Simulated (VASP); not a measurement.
# Biaxial (001) strain of fcc aluminium from −2 % to +2 %: normal strain, stress and strain energy with PBEsol

The usual rule of thumb for a strained metal film is that Hooke's law holds up to a strain of a percent or two. We test it on aluminium, because film stress and thickness change are routinely estimated from two elastic constants. Equal strain is imposed along both axes of the (001) plane, and the normal is left free of stress. Strains and energies are measured from the unstrained crystal relaxed with PBEsol, and tension counts as positive. We want the response along the normal, the in-plane stress, the energy per atom, the moduli that follow from them, and the strain at which proportionality is lost.

## Computational details

The start is an entry of the ASE's table of reference states database. The crystal was relaxed with PBEsol. Equal strain is imposed in the (001) plane; the strain along the normal is adjusted until the normal stress vanishes, and the atoms are relaxed with PBEsol. VASP 6.6.1, plane waves with PAW, cutoff 450 eV, no spin polarisation, no spin-orbit coupling, k mesh 25×25×25, static lattice. The same in all rows: band gap on the k mesh at PBEsol: 0.000 eV.

Notes on method and selection:

- Runs that did not converge, have known faults or may not be shown are not listed, and runs on Ansatz's PAW sets soft_1 and soft_2 are kept to separate tables.

Columns:

- strain (%): strain in the plane (tension positive).
- normal strain (%): strain along the normal.
- stress (GPa): in-plane stress, tension positive.
- strain energy (meV/atom): energy per atom above the relaxed crystal.

Input lines of one member:

```
PREC = Accurate
ENCUT = 450
EDIFF = 1E-07
NELM = 120
ISMEAR = 1
SIGMA = 0.15
LREAL = .FALSE.
ALGO = Normal
GGA = PS
NBANDS = 7
LASPH = .TRUE.
LORBIT = 11
KPAR = 2
IBRION = 1
NSW = 25
```

Command (options for logging and memory left out): `mpirun -np 2 vasp_std`

## The series

| member | strain (%) | normal strain (%) | stress (GPa) | strain energy (meV/atom) |
| --- | --- | --- | --- | --- |
| −2 % | −2.0 | 1.993 | −2.81 | 5.28 |
| −1.5 % | −1.5 | 1.541 | −1.98 | 2.88 |
| −1 % | −1.0 | 1.074 | −1.24 | 1.27 |
| −0.5 % | −0.5 | 0.536 | −0.60 | 0.33 |
| 0 % | 0.0 | 0.000 | 0.00 | 0.00 |
| +0.5 % | 0.5 | −0.555 | 0.55 | 0.25 |
| +1 % | 1.0 | −1.044 | 1.13 | 1.06 |
| +1.5 % | 1.5 | −1.523 | 1.66 | 2.46 |
| +2 % | 2.0 | −2.119 | 2.01 | 4.43 |

normal strain (%) against strain (%):

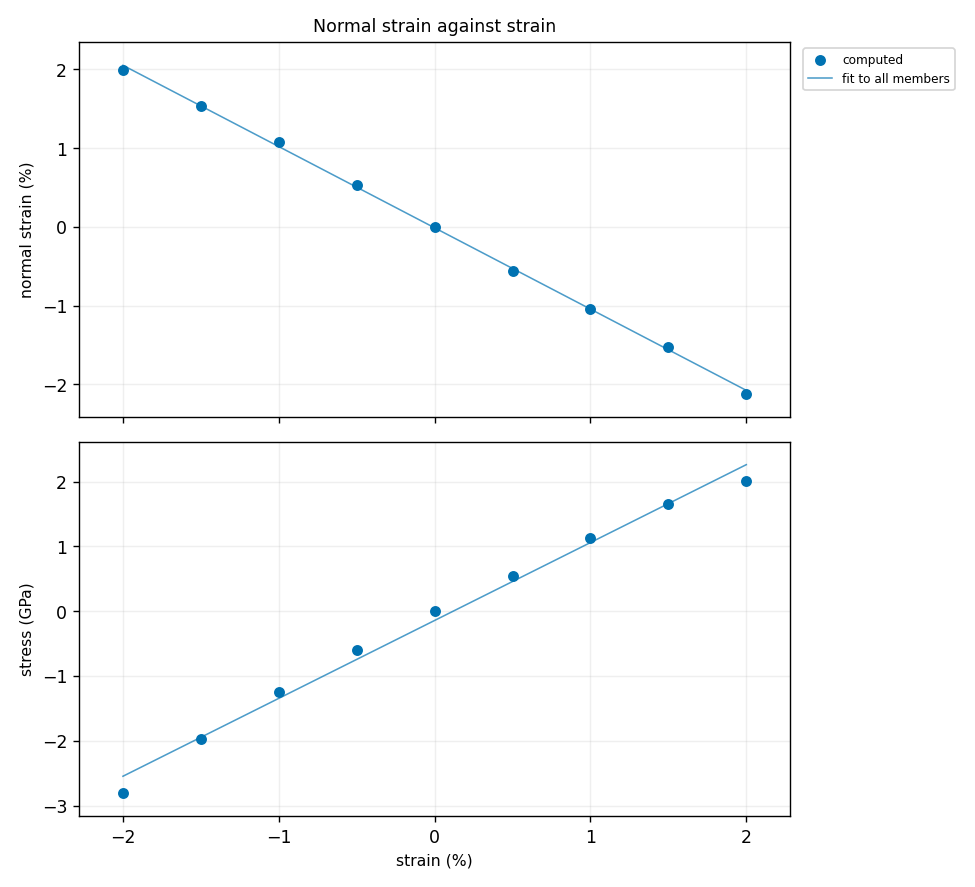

Least-squares fits to the whole series, with x = strain (%); R² and errors in the fitted variable (y, or ln y where the fit is in ln y):

| y | members | fit | R² | rms residual | leave-one-out rms | the same for the mean of the others |
| --- | --- | --- | --- | --- | --- | --- |
| normal strain (%) | 9 | y = −0.01078 − 1.032 x | 1.00 | 0.036 | 0.051 | 1.5 |
| stress (GPa) | 9 | y = −0.1422 + 1.203 x | 0.99 | 0.15 | 0.22 | 1.8 |

## Why the values move as they do

The crystal thins when stretched and thickens when compressed, by nearly the same percentage as the imposed strain: +2 % in the plane gives −2.119 % along the normal. The stress rises from −2.81 to 2.01 GPa across the series. The energy grows roughly as the square of the strain, and at each magnitude compression costs more than tension.

The simplest model rests on three assumptions:

1. Stress is linear in strain, with the constants $C_{11}$ and $C_{12}$ of the cubic crystal.
2. The normal stress is zero.
3. The cell shape is the only freedom. This is exact here: the strained cell is tetragonal with one atom, on which symmetry allows no force.

Let $\varepsilon$ be the in-plane strain and $\varepsilon_z$ the normal strain. The normal stress is

$$\sigma_z = 2C_{12}\,\varepsilon + C_{11}\,\varepsilon_z = 0,$$

so that

$$\varepsilon_z = -a\,\varepsilon, \qquad a = 2C_{12}/C_{11}.$$

Stretching the plane lowers the stress-free thickness because $C_{12}$ is positive. Constant volume would need $a = 2$. With $a$ close to 1, about half of the area change is compensated and the volume follows the sign of the strain.

The in-plane stress is

$$\sigma = (C_{11}+C_{12})\,\varepsilon + C_{12}\,\varepsilon_z = M\varepsilon, \qquad M = C_{11}+C_{12}-2C_{12}^2/C_{11}.$$

Two in-plane directions each contribute work $\tfrac12\sigma\varepsilon$ per volume, and the free normal contributes none. With the volume per atom $\Omega$, the energy per atom is

$$u = \Omega M\varepsilon^2 = K\varepsilon^2.$$

The three parameters are therefore $a$, $M$ and $K$. The shear constant $C_{44}$ does not enter, since this strain contains no shear between the cubic axes.

## The model against the table

We fix the model on the members −1 % and +1 %. Averaging their magnitudes cancels the lowest-order difference between compression and tension.

- $a$ = (1.074 + 1.044) / 2 = 1.059
- $M$ = (1.24 + 1.13) / 2 = 1.185 GPa per %, or 1.185 × 100 = 118.5 GPa
- $K$ = (1.27 + 1.06) / 2 = 1.165 meV/atom per %²

The moduli follow from $C_{12}/C_{11}$ = 1.059 / 2 = 0.5295:

- $C_{11}$ = 118.5 / (1 + 0.5295 − 2 × 0.5295²) = 122.3 GPa
- $C_{12}$ = 0.5295 × 122.3 = 64.8 GPa

For the ±0.5 % pair, $M$ = (0.60 + 0.55) / 2 / 0.005 = 115 GPa and $C_{12}/C_{11}$ = (0.536 + 0.555) / 2 / 0.5 / 2 = 0.5455. The same steps then give $C_{11}$ = 115 / (1 + 0.5455 − 2 × 0.5455²) = 121 GPa and $C_{12}$ = 0.5455 × 121 = 66 GPa, and the slopes fitted to the whole series give 122 and 63 GPa. $C_{12}$ is thus settled to a few GPa.

For four other members, with the tabulated value in brackets:

- **−2 %:** normal strain 1.059 × 2.0 = 2.118 % (1.993); stress −1.185 × 2.0 = −2.37 GPa (−2.81); energy 1.165 × 4.00 = 4.66 meV/atom (5.28).
- **−0.5 %:** 1.059 × 0.5 = 0.530 % (0.536); −1.185 × 0.5 = −0.59 GPa (−0.60); 1.165 × 0.25 = 0.29 meV/atom (0.33).
- **+1.5 %:** −1.059 × 1.5 = −1.589 % (−1.523); 1.185 × 1.5 = 1.78 GPa (1.66); 1.165 × 1.5 × 1.5 = 2.62 meV/atom (2.46).
- **+2 %:** −1.059 × 2.0 = −2.118 % (−2.119); 1.185 × 2.0 = 2.37 GPa (2.01); 4.66 meV/atom (4.43).

Over all nine rows the rms miss is 0.05 % in normal strain, 0.21 GPa in stress and 0.25 meV/atom in energy. Predicting each row by the mean of the others misses by 1.5 %, 1.8 GPa and 2.0 meV/atom.

## Residuals

Largest departures from the fit to the whole series:

| member | normal strain (%) | fit | computed − fit | in rms residuals |
| --- | --- | --- | --- | --- |
| −2 % | 1.993 | 2.053 | −0.060 | 1.7 |
| −1 % | 1.074 | 1.021 | +0.053 | 1.5 |
| +2 % | −2.119 | −2.075 | −0.044 | 1.2 |
| +1.5 % | −1.523 | −1.559 | +0.036 | 1.0 |

The tabulated stress lies below the model line at both ends: by 2.81 − 2.37 = 0.44 GPa at −2 % (19 % more compressive stress than the model gives) and by 2.37 − 2.01 = 0.36 GPa at +2 % (15 % less tension). The assumption that fails is constant moduli. Compression shortens the mean atomic spacing and steepens the repulsion, while tension does the reverse. Tension also carries the tetragonal cell towards the bcc shape, which should soften it further. Both effects have the right sign, but the series does not separate them. Geometry is not the cause: the area of a side face changes by at most 0.2 %. The same curvature produces the intercept of −0.1422 GPa in the straight-line fit, although the unstrained crystal carries no stress.

The row at +2 % is also uneven against its neighbours. From +1.5 % to +2 % the stress gains only 2.01 − 1.66 = 0.35 GPa, after 0.53 GPa in the step before, and the ratio of normal to in-plane strain rises from 1.02 to 1.06 after falling. We suspect the sampling of the Fermi surface first: a shift of 0.05 % in normal strain corresponds to an error in the normal stress of only 122 × 0.0005 = 0.06 GPa. A real change of the Fermi surface with strain is the other possibility. Part of the shortfall in stress at +2 % may therefore be numerical.

## What to take away

In the rows up to ±1 %, linear elasticity gives the stress to within 0.06 GPa. At ±2 % it is off by 15 to 19 % of its own value, too low in magnitude for compression and too high for tension. If a miss of a tenth of the model stress is taken as the limit, proportionality is lost between −1 % and −1.5 % in compression, and between +1.5 % and +2 % in tension. The normal strain stays closer to proportionality, within 0.13 % strain in every row.

Two omitted effects matter for a real film. Dislocation glide, absent from a one-atom cell, relieves stress: in soft bulk aluminium it would remove most of the 1.13 GPa found at +1 %, leaving roughly 0.1 GPa or less. A thin film can hold more, because its thickness and grain size hinder glide. Heating from the static lattice to room temperature lowers the moduli by very roughly 10 %, which is more than the nonlinearity at ±1 %.

[Logs are printed without paths, hosts, clocks, repeated set-up lines and the standing remarks that a program may print on its own settings, such as how far it seeks lower states.]
